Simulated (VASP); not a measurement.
# Bulk modulus and pressure derivative of fcc Cu at LDA, from stress and from energy against strain

The decision is how far a copper length gauge may be loaded. A piece of copper with an edge of 100 µm at zero pressure sits in a liquid-filled cell, and its shortening indicates the pressure. The brief, set here in round numbers, asks for the largest shortening at no more than 10 GPa, and for at least 0.5 µm so that the change can be read.

The design needs the bulk modulus B0 and its pressure derivative B0′. Both are calculated for a static lattice at LDA, once from the stress tensor and once from the energy. Strain and shortening are measured from the fitted V0, the volume at the minimum of the energy curve, and compression counts as positive. The seven volumes serve as candidate working points.

## Calculations

One crystal, Cu (fcc) (known phase), at LDA: single-point runs on uniformly scaled copies of a cell relaxed at LDA; symmetry fixes shape and positions. Program: VASP 6.6.1, plane waves and PAW (data sets made for LDA of release 64), scalar-relativistic without spin-orbit coupling, no spin polarisation. Cutoff 400 eV; on the k meshes the divisions times the cell-vector length are 31 Å or more. Occupations: first-order Methfessel-Paxton smearing of 0.2 eV.

Notes on method and selection:

- Third-order Birch-Murnaghan: P = 3·B0·f·(1 + 2f)^(5/2)·[1 + (3/2)(B0′ − 4)·f]. The fit to the energies of these runs gives B0 = 185.2 GPa and B0′ = 5.10.
- Static lattice. The pressure from the stress tensor and the slope of the energy need not agree exactly at a finite cutoff and mesh.
- A measured value is attached only where its sources agree among themselves; tables made before the last selection also left out values far from the computed one, as likely another phase or mode.
- Series whose points a third-order Birch-Murnaghan form does not fit, or whose B0′ lies outside 2 to 8, were left out.
- Crystals whose pressure at the fitted V0 departs from zero by more than 0.6 % of B0 plus 0.1 GPa, and layered compounds, were left out.
- Runs that did not converge, have known faults or may not be shown are not listed, and runs on Ansatz's PAW sets soft_1 and soft_2 are kept to separate tables.

Columns:

- Eulerian strain: Eulerian strain f = ½[(V0/V)^(2/3) − 1] with the fitted V0 = 10.9341 Å³ per atom, compression positive.
- fitted bulk modulus (GPa): bulk modulus at that volume from the third-order Birch-Murnaghan fit to the energies.
- volume (Å³): volume per atom.
- pressure (GPa): pressure from the stress tensor, compression positive.
- energy (meV/atom): energy per atom above the lowest point, extrapolated to zero smearing.

## Results

| member | Eulerian strain | fitted bulk modulus (GPa) | volume (Å³) | pressure (GPa) | energy (meV/atom) |
| --- | --- | --- | --- | --- | --- |
| V = 11.540 Å³ | −0.01764 | 139.3 | 11.5395 | −9.55 | 17.24 |
| V = 11.322 Å³ | −0.01148 | 154.4 | 11.3218 | −6.77 | 7.25 |
| V = 11.104 Å³ | −0.00511 | 171.1 | 11.1041 | −3.61 | 1.35 |
| V = 10.886 Å³ | 0.00146 | 189.3 | 10.8863 | −0.05 | 0.00 |
| V = 10.669 Å³ | 0.00826 | 209.5 | 10.6686 | 3.97 | 3.79 |
| V = 10.451 Å³ | 0.01530 | 231.8 | 10.4509 | 8.48 | 13.38 |
| V = 10.233 Å³ | 0.02258 | 256.4 | 10.2332 | 13.60 | 29.59 |

pressure (GPa) against Eulerian strain:

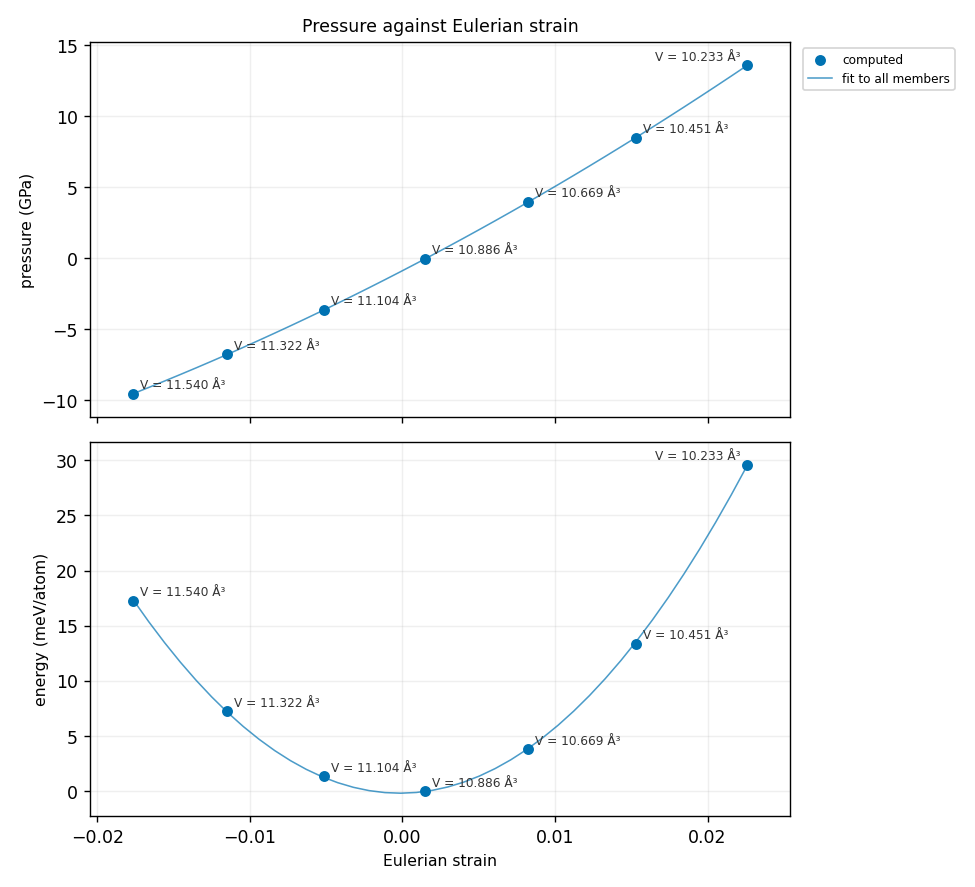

Least-squares fits to the whole series, with x = Eulerian strain; R² and errors in the fitted variable (y, or ln y where the fit is in ln y):

| y | members | fit | R² | rms residual | leave-one-out rms | the same for the mean of the others |
| --- | --- | --- | --- | --- | --- | --- |
| pressure (GPa) | 7 | y = −0.87609 + 556.55 x + 3710.2 x² | 1.00 | 0.014 | 0.039 | 9.0 |
| energy (meV/atom) | 7 | y = −0.1771 + 18.23 x + 57350 x² | 1.00 | 0.11 | 0.28 | 11 |

## What drives the series

Both routes give a bulk modulus near 185 GPa and a derivative near 5.1 at V0.

For the pressure, B = (1/3)·(1 + 2f)·dP/df. The fitted parabola gives B0 = 556.55 / 3 = 185.5 GPa and B0′ = (2/3) × (1 + 3710.2 / 556.55) = 5.11.

For the energy, E = (9/2)·B0·V0·f²·[1 + (B0′ − 4)·f], counted from the minimum. The lowest row lies 57350 × 0.00146² = 0.12 meV above that minimum. At the two ends E/f² is then (17.24 + 0.12) / 0.01764² = 55790 and (29.59 + 0.12) / 0.02258² = 58270 meV. The slope between them is (58270 − 55790) / (0.02258 + 0.01764) = 61700 meV, and the value at zero strain is 55790 + 61700 × 0.01764 = 56880 meV. Hence B0′ = 4 + 61700 / 56880 = 5.08, and B0 = (2/9) × 56880 / 1000 / 10.9341 × 160.2 = 185.2 GPa, where 1000 converts meV to eV and 160.2 converts eV/Å³ to GPa. The full Birch-Murnaghan fit gives 185.2 GPa and 5.10. The printed energy parabola has no cubic term: its curvature corresponds to (2/9) × 57350 / 1000 / 10.9341 × 160.2 = 186.7 GPa, and it cannot supply B0′.

The modulus rises from 139.3 to 256.4 GPa, a factor of 1.84, while the volume falls by 11 %. In a simple model, E = a·V^(−m) − b·V^(−n), attraction and repulsion balance at V0, but the steeper repulsion dominates the curvature, and B0′ = m + n + 2. Free-electron kinetic energy (m = 2/3) with electrostatic attraction (n = 1/3) would give 3. The larger value found here calls for a steeper repulsion, for which the overlap of filled d shells is a plausible source.

## Members off the line

Largest departures from the fit to the whole series:

| member | pressure (GPa) | fit | computed − fit | in rms residuals |
| --- | --- | --- | --- | --- |
| V = 10.451 Å³ | 8.48 | 8.51 | −0.03 | 1.9 |
| V = 10.233 Å³ | 13.60 | 13.58 | +0.02 | 1.2 |
| V = 11.104 Å³ | −3.61 | −3.62 | +0.01 | 0.9 |
| V = 11.540 Å³ | −9.55 | −9.54 | −0.01 | 0.8 |

No row departs from the pressure parabola by more than 0.03 GPa. The signs of the four listed departures are those left by the missing cubic term, which accounts for about 0.02 GPa.

The larger discrepancy is common to the whole series. At V0 the stress tensor gives −0.88 GPa where the energy slope is zero. This is the expected sign of Pulay stress, which is the likely cause. At fixed cutoff a smaller cell holds fewer plane waves, which raises its energy; the energy slope includes this change of basis and the stress tensor does not. A nearly constant offset hardly alters dP/df at a given volume, so both routes give nearly the same B0. Taken at the zero of the stress pressure instead, the modulus would be about 185.5 + 5.11 × 0.88 = 190 GPa, because that volume is smaller.

## Selection

The three expanded volumes, from 11.104 Å³ upwards, are under tension and drop out. For the other four, the pressure follows from the energy fit as P = 555.6·f·(1 + 2f)^(5/2)·(1 + 1.65·f) in GPa, with 3 × 185.2 = 555.6 and 1.5 × (5.10 − 4) = 1.65. The shortening of the 100 µm edge is 100·[1 − (1 + 2f)^(−1/2)] in µm.

- V = 10.886 Å³: 0.82 GPa and 0.15 µm, too small a change to read.
- V = 10.669 Å³: 555.6 × 0.00826 × (1 + 2 × 0.00826)^(5/2) × (1 + 1.65 × 0.00826) = 4.85 GPa and 0.82 µm, which meets the brief.
- V = 10.451 Å³: 555.6 × 0.01530 × (1 + 2 × 0.01530)^(5/2) × (1 + 1.65 × 0.01530) = 9.40 GPa and 1.5 µm, which meets the brief.
- V = 10.233 Å³: 555.6 × 0.02258 × (1 + 2 × 0.02258)^(5/2) × (1 + 1.65 × 0.02258) = 14.5 GPa and 2.2 µm, above the pressure limit.

The pick is V = 10.451 Å³, which gives the largest shortening within the limit. The runner-up is V = 10.669 Å³, with about half the shortening at about half the pressure.

The stress tensor gives 8.48 GPa at the pick, which is 9.40 − 8.48 = 0.92 GPa below the energy route. The edge there is 100 − 1.5 = 98.5 µm long and the modulus 231.8 GPa, so the gauge responds by 98.5 / (3 × 231.8) = 0.142 µm per GPa. The disagreement between the routes therefore amounts to 0.92 × 0.142 = 0.13 µm, well below the 1.5 − 0.82 = 0.68 µm between pick and runner-up.

The error of LDA is larger. It typically makes late 3d metals too stiff; for copper roughly 30 % is assumed here, from general experience rather than from these runs. At the same relative shortening, real copper would then be under about 9.40 / 1.3 = 7 GPa at the pick and 14.5 / 1.3 = 11 GPa at the strongest compression. The selection stays the same, but the LDA pressure scale should not be used to calibrate the gauge.

On the uncorrected LDA scale, a limit of 9 GPa instead of 10 would make the routes disagree: the energy route would reject V = 10.451 Å³ while the stress tensor would still admit it. The energy route should then decide between the two, since its slope is consistent with the fitted V0 from which the shortening is measured. For real copper, at about 7 GPa by the rough correction above, the pick would still stand.

## What to take away

Between 10.23 and 11.54 Å³ per atom, stress and energy agree on B0 within about 1 GPa and on B0′ within about 0.1, provided both are evaluated at the same volume. Series with a larger pressure offset or a poor Birch-Murnaghan fit were left out, so this agreement does not show how often the two routes match in general.

Two errors exceed the difference between the routes, though not the 117 GPa range of the modulus over the series. With the 30 % assumed above, LDA overbinding raises B0 by some 40 GPa. Leaving out zero-point motion and thermal expansion raises it further, by roughly 5 to 10 GPa relative to room temperature, again a rough figure from general experience rather than from these runs.
